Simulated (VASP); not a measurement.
# Hf (P6_3/mmc) under biaxial (0001) strain of up to 2 %: normal strain, stress and strain energy with PBEsol

Compressing the basal plane of Hf by 2 % costs 14.71 meV/atom in these calculations, while stretching it by 2 % costs only 8.11 meV/atom. Yet the two stresses, −4.43 and 4.08 GPa, differ by less than a tenth in size. We have to know which column to believe before we can design a strained film.

Our brief is a coherent Hf (0001) seed layer, 10 nm thick. Its layer spacing must be at least 0.6 % smaller than in the relaxed crystal, and its in-plane force per width may not exceed 35 N/m. Among the rows that meet both limits we prefer the one that stores the least elastic energy. Strains are measured against the crystal relaxed with PBEsol, and the surface normal is free of stress.

## Set-up

The start is an entry of the ASE's table of reference states database. The crystal was relaxed with PBEsol. Equal strain is imposed in the (0001) plane; the strain along the normal is adjusted until the normal stress vanishes, and the atoms are relaxed with PBEsol. VASP 6.6.1, plane waves with PAW, cutoff 470 eV, no spin polarisation, no spin-orbit coupling, k mesh 21×21×12, static lattice. The same in all rows: band gap on the k mesh at PBEsol: 0.000 eV.

Notes on method and selection:

- Runs that did not converge, have known faults or may not be shown are not listed, and runs on Ansatz's PAW sets soft_1 and soft_2 are kept to separate tables.

Columns:

- strain (%): strain in the plane (tension positive).
- normal strain (%): strain along the normal.
- stress (GPa): in-plane stress, tension positive.
- strain energy (meV/atom): energy per atom above the relaxed crystal.

Input lines of one member:

```
PREC = Accurate
ENCUT = 470
EDIFF = 1E-07
NELM = 120
ISMEAR = 1
SIGMA = 0.15
LREAL = .FALSE.
ALGO = Normal
GGA = PS
NBANDS = 18
LASPH = .TRUE.
LORBIT = 11
KPAR = 2
IBRION = 1
NSW = 25
```

Command (options for logging and memory left out): `mpirun -np 2 vasp_std`

## Table of results

| member | strain (%) | normal strain (%) | stress (GPa) | strain energy (meV/atom) |
| --- | --- | --- | --- | --- |
| −2 % | −2.0 | 1.555 | −4.43 | 14.71 |
| −1.5 % | −1.5 | 1.158 | −3.29 | 8.86 |
| −1 % | −1.0 | 0.767 | −2.17 | 4.48 |
| −0.5 % | −0.5 | 0.374 | −1.07 | 1.61 |
| 0 % | 0.0 | 0.000 | 0.01 | 0.14 |
| +0.5 % | 0.5 | −0.366 | 1.06 | 0.08 |
| +1 % | 1.0 | −0.721 | 2.09 | 1.41 |
| +1.5 % | 1.5 | −1.065 | 3.10 | 4.09 |
| +2 % | 2.0 | −1.400 | 4.08 | 8.11 |

normal strain (%) against strain (%):

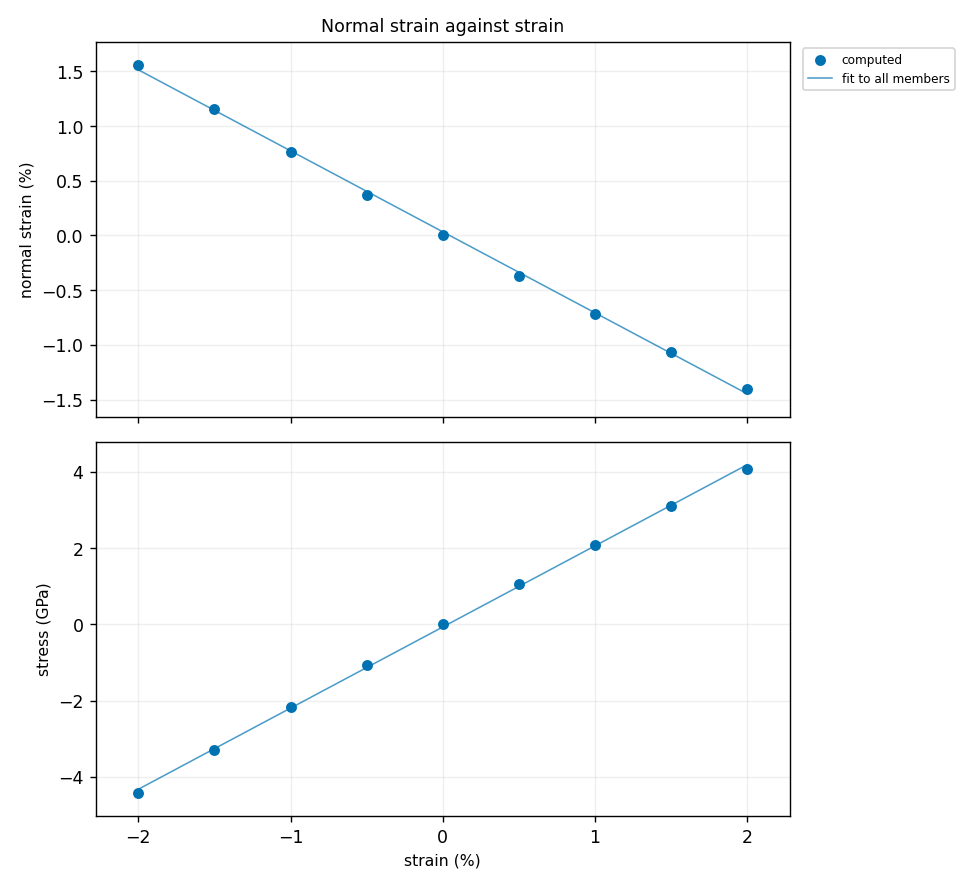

Least-squares fits to the whole series, with x = strain (%); R² and errors in the fitted variable (y, or ln y where the fit is in ln y):

| y | members | fit | R² | rms residual | leave-one-out rms | the same for the mean of the others |
| --- | --- | --- | --- | --- | --- | --- |
| normal strain (%) | 9 | y = 0.03356 − 0.7402 x | 1.00 | 0.029 | 0.040 | 1.1 |
| stress (GPa) | 9 | y = −0.06889 + 2.129 x | 1.00 | 0.067 | 0.095 | 3.1 |

## Interpretation

Each 1 % of in-plane strain adds 2.13 GPa of stress and changes the normal strain by −0.74 %. The innermost pair of strained rows gives (1.06 + 1.07) / 1.0 = 2.13 GPa per % and the outermost (4.08 + 4.43) / 4.0 = 2.13 GPa per %, so the biaxial modulus Y is 2.13 × 100 = 213 GPa. For a hexagonal crystal with a free normal,

Y = C₁₁ + C₁₂ − 2C₁₃²/C₃₃ and ε(normal) = −(2C₁₃/C₃₃) ε,

which gives C₁₃/C₃₃ = 0.74 / 2 = 0.37. The individual constants do not follow from this one type of strain.

The contraction has a geometric side. Near the ideal axial ratio, a normal strain of about −0.5 % per 1 % would keep the bonds between layers at constant length, and −2 % would keep the volume. The computed −0.74 % lies between: under tension the bonds between layers shorten slightly and make up for part of the density lost in the plane.

Linear elasticity holds to about 2 % in the stress at ±1 % strain and to about 4 % at ±2 %, where the line gives 2 × 2.13 = 4.26 GPa. The normal strain departs by about 5 % at ±2 %. Compression is the stiffer side, as expected from interatomic forces that rise more steeply when bonds are shortened.

The energy agrees with this modulus once opposite strains are averaged. At ±2 %, ((14.71 + 8.11) / 2 − 0.14) / 4 = 2.82 meV/atom per %²; ±0.5 % gives the same. In a linear solid this coefficient is Y times the atomic volume. For strain as a plain fraction it is 2.82 × 10 = 28.2 eV/atom, and 1 eV/Å³ is 160.2 GPa, hence 160.2 × 28.2 / 213 = 21.2 Å³ per atom, close to the volume per atom of the relaxed crystal.

## Members off the line

Largest departures from the fit to the whole series:

| member | normal strain (%) | fit | computed − fit | in rms residuals |
| --- | --- | --- | --- | --- |
| +2 % | −1.400 | −1.447 | +0.047 | 1.6 |
| −2 % | 1.555 | 1.514 | +0.041 | 1.4 |
| 0 % | 0.000 | 0.034 | −0.034 | 1.2 |
| −0.5 % | 0.374 | 0.404 | −0.030 | 1.0 |

The uneven strain energies are mostly numerical. Half the difference between opposite strains is (1.61 − 0.08) / 2 / 0.5 = 1.53 meV/atom per % at ±0.5 % and (14.71 − 8.11) / 2 / 2 = 1.65 at ±2 %. It is thus nearly linear in strain, whereas true anharmonicity would grow as the cube. At a fixed cutoff a larger cell receives more plane waves. The energies include this gain, but the stress is a derivative at a fixed set of plane waves and misses it (Pulay stress). The energy minimum therefore lies at about 1.53 / (2 × 2.82) = 0.27 % tension, although the computed stress vanishes near 0 %. The energies are thus counted from a cell that is not quite at their minimum, and single entries should not be read as elastic energies. The 0.14 meV/atom at zero strain is probably also an effect of the change of basis.

The part missing from the stress should be nearly the same in all rows, so the changes of stress and normal strain from the relaxed crystal can be trusted. The largest departures from the straight-line fit to the normal strain reflect its curvature. The −0.5 % row is the one most visibly off the smooth curve: a small compressive normal stress was left there, so its 0.374 % is too low by a few thousandths of a per cent.

## Choosing a member

The four compressed rows expand along the normal and the unstrained row does not change, so all five fail the brief. The tensile rows are screened with

F = σt and W = Yε²t,

where F is the force per width, W the stored energy per area, t = 10 nm and Y = 213 GPa; 1 GPa × 1 nm = 1 N/m = 1 J/m². We take W from the modulus because the energy column is not counted from its own minimum.

- **+0.5 %:** the contraction is 0.366 %, short of the required 0.6 %.
- **+1 %:** the contraction is 0.721 %, F = 2.09 × 10 = 20.9 N/m and W = 213 × 0.0001 × 10 = 0.21 J/m². It passes.
- **+1.5 %:** the contraction is 1.065 %, F = 3.10 × 10 = 31.0 N/m and W = 213 × 0.015 × 0.015 × 10 = 0.48 J/m². It passes.
- **+2 %:** F = 4.08 × 10 = 40.8 N/m, above the limit of 35 N/m.

For elastic properties of metals we allow PBEsol a rough error of 10 % either way. The +1 % row then keeps a contraction of at least 0.721 × 0.9 = 0.649 %, and the +1.5 % row a force of at most 31.0 × 1.1 = 34.1 N/m. The +0.5 % row still fails with 0.366 × 1.1 = 0.403 %, as does the +2 % row with 40.8 × 0.9 = 36.7 N/m. No verdict changes.

The pick is +1 %, with +1.5 % as runner-up at more than twice the stored energy. A required contraction above 0.72 % would reverse the order. Loss of coherence would overturn both, since the film would then shed its strain through dislocations or twins. Slip along the in-plane ⟨a⟩ directions cannot do this, because equal biaxial stress exerts no resolved shear on it; slip with a component along the normal is needed.

## Conclusions and limits

Between −2 % and +2 %, a modulus of 213 GPa and a normal strain of −0.74 % per 1 % reproduce the computed rows to about 5 %. When the basis changes with the cell, the modulus is best taken from the stress, or from energies averaged over opposite strains.

The omitted effect that far outweighs this nonlinearity is plastic relaxation. It lowers the stress and in a thick film can remove most of it, so the values in GPa apply only while the film stays coherent. Temperature is also left out; warming to room temperature typically softens such a metal by roughly 5 %, about as much as the nonlinearity at the ends of the series.

[Logs are printed without paths, hosts, clocks, repeated set-up lines and the standing remarks that a program may print on its own settings, such as how far it seeks lower states.]
